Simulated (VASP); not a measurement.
# Transverse strain, stress and strain energy of wurtzite GaN under uniaxial [0001] strain up to ±2 % in LDA

In wurtzite GaN each Ga atom is bound to four N atoms by strong, partly ionic bonds, one of them along [0001] and three inclined to it. A load along [0001] can therefore be taken up by changes in bond length and by changes in bond angle, and the balance between the two sets the sideways response. Device layers are often grown along this axis, and their stress analysis usually assumes constant elastic moduli. We test that assumption with LDA calculations for a static lattice. Axial and transverse strains and the energy are measured from the relaxed LDA crystal; tension is positive, and the stress across the axis is relaxed to zero.

## Calculations

The start is a typed prototype cell. The crystal was relaxed with LDA. Strain is imposed along [0001]; the strain across the axis is adjusted until the stress across it vanishes, and the atoms are relaxed with LDA. VASP 6.6.1, plane waves with PAW, cutoff 600 eV, no spin polarisation, no spin-orbit coupling, k mesh 11×11×6, static lattice.

Notes on method and selection:

- Runs that did not converge, have known faults or may not be shown are not listed, and runs on Ansatz's PAW sets soft_1 and soft_2 are kept to separate tables.

Columns:

- strain (%): strain along the axis (tension positive).
- gap (eV): band gap on the k mesh at LDA.
- transverse strain (%): strain across the axis.
- stress (GPa): stress along the axis, tension positive.
- strain energy (meV/atom): energy per atom above the relaxed crystal.

## Table of results

| member | strain (%) | gap (eV) | transverse strain (%) | stress (GPa) | strain energy (meV/atom) |
| --- | --- | --- | --- | --- | --- |
| −2 % | −2.0 | 2.178 | 0.428 | −7.38 | 5.31 |
| −1.5 % | −1.5 | 2.178 | 0.314 | −5.57 | 3.02 |
| −1 % | −1.0 | 2.174 | 0.209 | −3.73 | 1.38 |
| −0.5 % | −0.5 | 2.155 | 0.105 | −1.88 | 0.37 |
| 0 % | 0.0 | 2.113 | 0.004 | −0.03 | 0.00 |
| +0.5 % | 0.5 | 2.069 | −0.095 | 1.80 | 0.27 |
| +1 % | 1.0 | ? | ? | ? | ? |
| +1.5 % | 1.5 | 1.976 | −0.281 | 5.47 | 2.66 |
| +2 % | 2.0 | 1.926 | −0.368 | 7.29 | 4.82 |

Cells marked ? are withheld until the estimate has been made.

transverse strain (%) against strain (%), members shown:

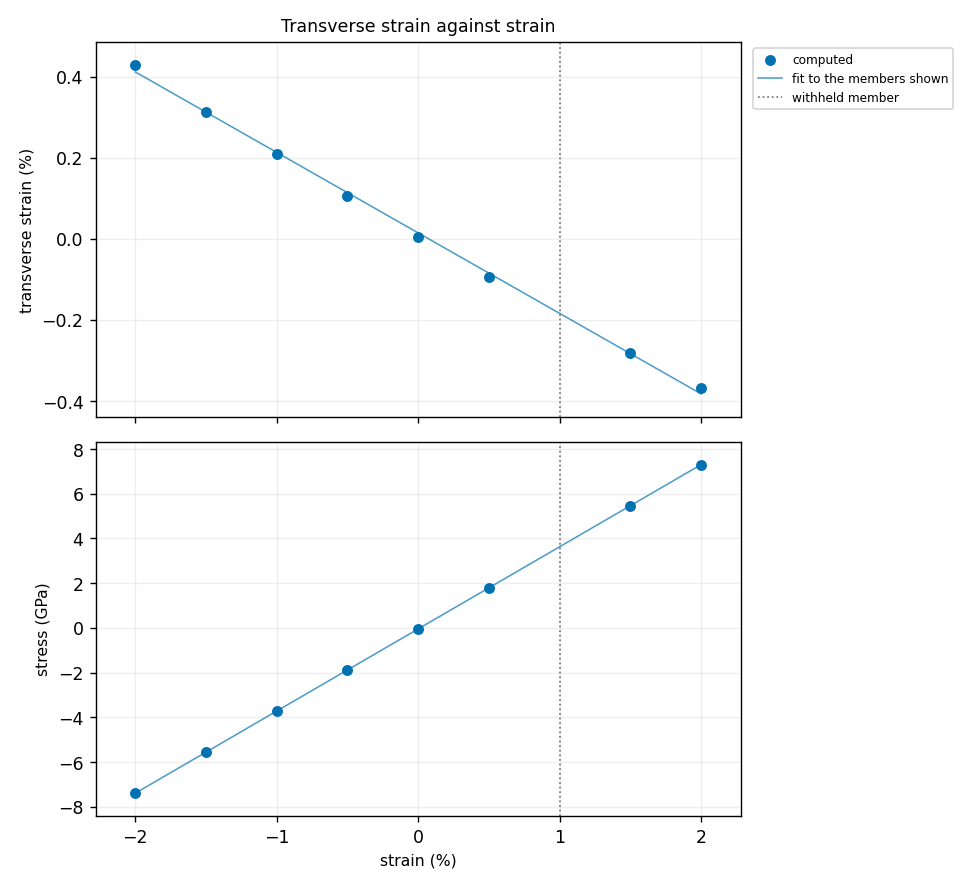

Least-squares fits to the members shown, with x = strain (%); R² and errors in the fitted variable (y, or ln y where the fit is in ln y):

| y | members | fit | R² | rms residual | leave-one-out rms | the same for the mean of the others |
| --- | --- | --- | --- | --- | --- | --- |
| transverse strain (%) | 8 | y = 0.01469 − 0.1985 x | 1.00 | 0.0100 | 0.015 | 0.30 |
| stress (GPa) | 8 | y = −0.04459 + 3.673 x | 1.00 | 0.011 | 0.015 | 5.5 |

## What drives the series

The crystal widens when compressed along the axis and narrows when stretched. Between −0.5 % and +0.5 % the transverse strain changes by −0.095 − 0.105 = −0.200 %, which gives a Poisson ratio of 0.200 near zero strain. Over the same interval the stress rises by 1.80 + 1.88 = 3.68 GPa for 1 % of strain, a Young's modulus of 3.68 / 0.01 = 368 GPa. In terms of the elastic constants, the Poisson ratio is C13/(C11 + C12) and the modulus is C33 − 2 C13²/(C11 + C12), so these runs fix two combinations and not the separate constants.

The stress stays close to linear. Its slope is 3.62 GPa per % between −2 % and −1.5 %, and 3.64 between +1.5 % and +2 %. The transverse strain departs sooner: over the same two intervals the local Poisson ratio is 0.114 / 0.5 = 0.228 and 0.087 / 0.5 = 0.174. A small part of this fall is geometric. Because strains are referred to the original lengths, a constant ratio ν between true strain increments would appear as a local ratio of about ν[1 − (1 + ν)ε] at axial strain ε. The midpoints of the two intervals lie (0.015 + 0.020) / 2 = 0.0175 on either side of zero, hence 2 × 0.0175 = 0.035 apart in ε, and 1 + ν is 1 + 0.20 = 1.20, which gives a fall of 0.20 × 1.20 × 0.035 = 0.008, out of 0.228 − 0.174 = 0.054. The rest is a change in the elastic response itself. A possible cause is that compression stiffens the bonds against shortening more than against bending, so that the crystal gives way sideways more readily. The internal parameter u, the length of the axial Ga–N bond divided by the cell length c, grows under compression. The axial bond therefore shortens by a smaller fraction than the cell, so bond angles take up part of the load. The growth of u does not by itself show that this balance changes with strain.

Averaged over the two signs, the strain energy is (5.31 + 4.82) / 2 = 5.065 meV/atom at 2 % and (0.37 + 0.27) / 2 = 0.32 meV/atom at 0.5 %, a ratio of 5.065 / 0.32 = 15.8 against 16 for a parabola. At equal strain, tension costs slightly less than compression. That difference grows roughly in proportion to the strain, not to its cube, which points to a small offset between energy and stress, possibly from the finite plane-wave basis, more than to anharmonicity.

## Predicting the missing value

Plain estimates from the members shown:

- +1 %, fit at x = 1.0: −0.184 %
- +1 %, straight-line interpolation between +0.5 % and +1.5 %: w = (1.0 − 0.5) / (1.5 − 0.5) = 0.500, so −0.095 + 0.500 × (−0.281 − (−0.095)) = −0.188 %

The straight-line fit over the whole range averages over a Poisson ratio that changes, so the neighbouring members are the better basis. Interpolation between +0.5 % and +1.5 % gives −0.188 %, but the transverse strain curves upwards, and a chord then lies above the curve. The same construction at −1.5 %, −1 %, −0.5 % and 0 % comes out too high each time. The value at +1 % should therefore be slightly more negative than −0.188 %.

To include the curvature we pass a cubic through the two nearest members on each side. At the midpoint of these four strains the inner two carry a weight of 2/3 each and the outer two −1/6 each:

2/3 × (−0.095 − 0.281) − 1/6 × (0.004 − 0.368) = −0.190 %.

Two shown members have the same arrangement of neighbours. At −0.5 % the formula gives 2/3 × (0.209 + 0.004) − 1/6 × (0.314 − 0.095) = 0.1055 % against 0.105 %, and at −1 % it gives 2/3 × (0.314 + 0.105) − 1/6 × (0.428 + 0.004) = 0.2073 % against 0.209 %. The root-mean-square miss is 0.0012 %, which we round to 0.001 % and take as one standard deviation. The band gap gives no reason for a further shift, because it stays open and direct at Γ throughout, and the space group is unchanged.

**Committed estimate, +1 %: transverse strain = −0.190 ± 0.001 %.**

## Check

| member | strain (%) | gap (eV) | transverse strain (%) | stress (GPa) | strain energy (meV/atom) |
| --- | --- | --- | --- | --- | --- |
| +1 % | 1.0 | 2.023 | −0.190 | 3.63 | 1.17 |

| member | estimate | transverse strain (%) | computed | estimate − computed | miss in error bars |
| --- | --- | --- | --- | --- | --- |
| +1 % | committed | −0.190 | −0.190 | 0.000 | 0.0 |
| +1 % | fit | −0.184 | −0.190 | +0.006 |  |
| +1 % | interpolation | −0.188 | −0.190 | +0.002 |  |

transverse strain (%) against strain (%):

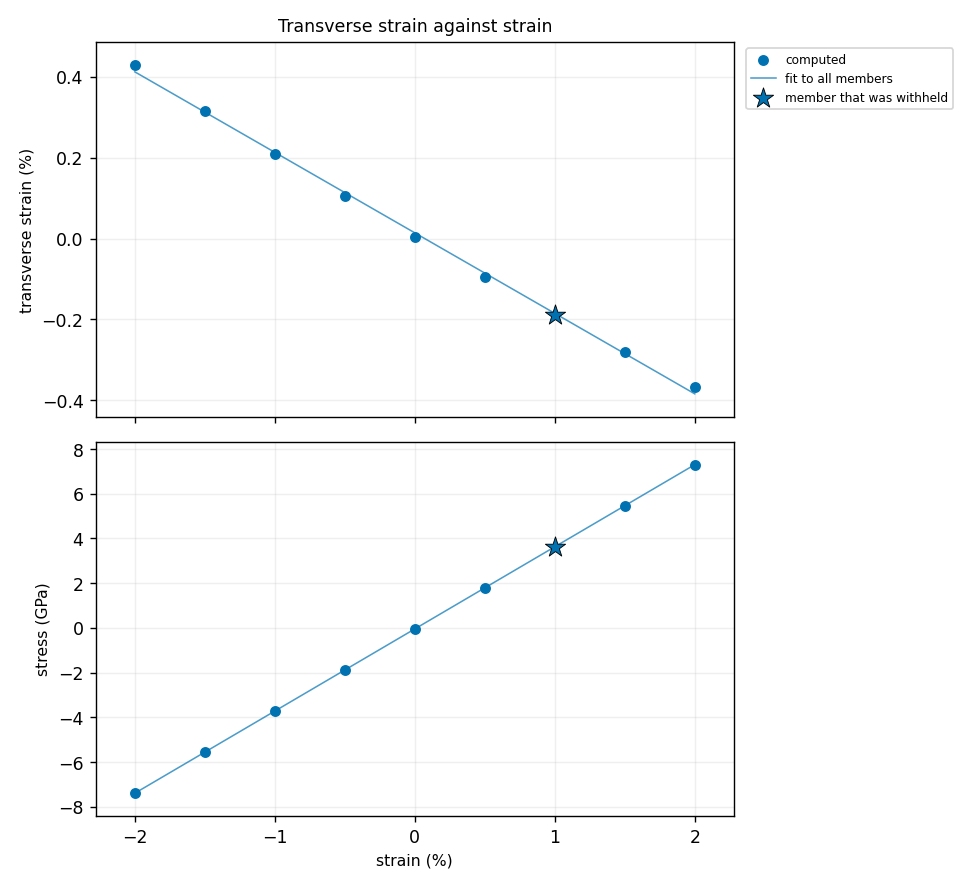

The estimate of −0.190 % agrees with the computed transverse strain to the last printed digit, well inside the error bar of 0.001 %. Interpolation between the two neighbours came out 0.002 % too high and the straight-line fit 0.006 % too high.

The argument from curvature held: a chord lies above the points between its ends, and the two outer neighbours gave the correction the right sign and size. Our remark on the band gap added nothing, since a gap that stays open and direct does not by itself fix the elastic response.

With the new member, the local Poisson ratio under tension is 0.095 / 0.5 = 0.190 between +0.5 % and +1 %, then 0.091 / 0.5 = 0.182 and 0.087 / 0.5 = 0.174 over the next two intervals. This steady fall fits a gradual change in the balance between bond stretching and bond bending. It does not identify which of the two stiffnesses changes more, so our account of bonds stiffening under compression remains a conjecture.

## Where the trend breaks

Least-squares fits to the whole series, with x = strain (%); R² and errors in the fitted variable (y, or ln y where the fit is in ln y):

| y | members | fit | R² | rms residual | leave-one-out rms | the same for the mean of the others |
| --- | --- | --- | --- | --- | --- | --- |
| transverse strain (%) | 9 | y = 0.01400 − 0.1989 x | 1.00 | 0.0096 | 0.014 | 0.29 |
| stress (GPa) | 9 | y = −0.044444 + 3.6733 x | 1.00 | 0.010 | 0.014 | 5.3 |

Largest departures from the fit to the whole series:

| member | transverse strain (%) | fit | computed − fit | in rms residuals |
| --- | --- | --- | --- | --- |
| −2 % | 0.428 | 0.412 | +0.016 | 1.7 |
| +2 % | −0.368 | −0.384 | +0.016 | 1.6 |
| 0 % | 0.004 | 0.014 | −0.010 | 1.0 |
| +0.5 % | −0.095 | −0.085 | −0.010 | 1.0 |

No single member stands out. The departures of +0.016 % at both −2 % and +2 %, with −0.010 % at 0 % and +0.5 %, are the pattern left when a straight line is drawn through a smoothly curved response. The transverse strain of 0.004 % at zero axial strain has a separate, numerical origin: a small compressive stress across the axis remained in the reference crystal, and the cell widened slightly when it was removed.

## Closing remarks

Between −2 % and +2 % the stress is nearly linear, with slopes between neighbouring members of 3.62 to 3.70 GPa per %. A constant Poisson ratio of 0.200 is less exact: measured from the 0 % member, the ratio is 0.424 / 2 = 0.212 at −2 % and 0.372 / 2 = 0.186 at +2 %, so the departure reaches (0.200 − 0.186) / 0.200 = 0.07, or 7 % of the constant value. Inside the range, a member with two neighbours on each side can be estimated to about 0.001 % in transverse strain.

For small loads, a tensile stress of 1 GPa along [0001] gives an axial strain of 1 / 3.68 = 0.27 % and a transverse strain of −0.200 × 0.27 = −0.054 %. This holds for sides free to move, not for a film clamped to a substrate.

For loading along [0001] with free sides, constant moduli therefore describe the axial stress well over this range, and the sideways response less well.
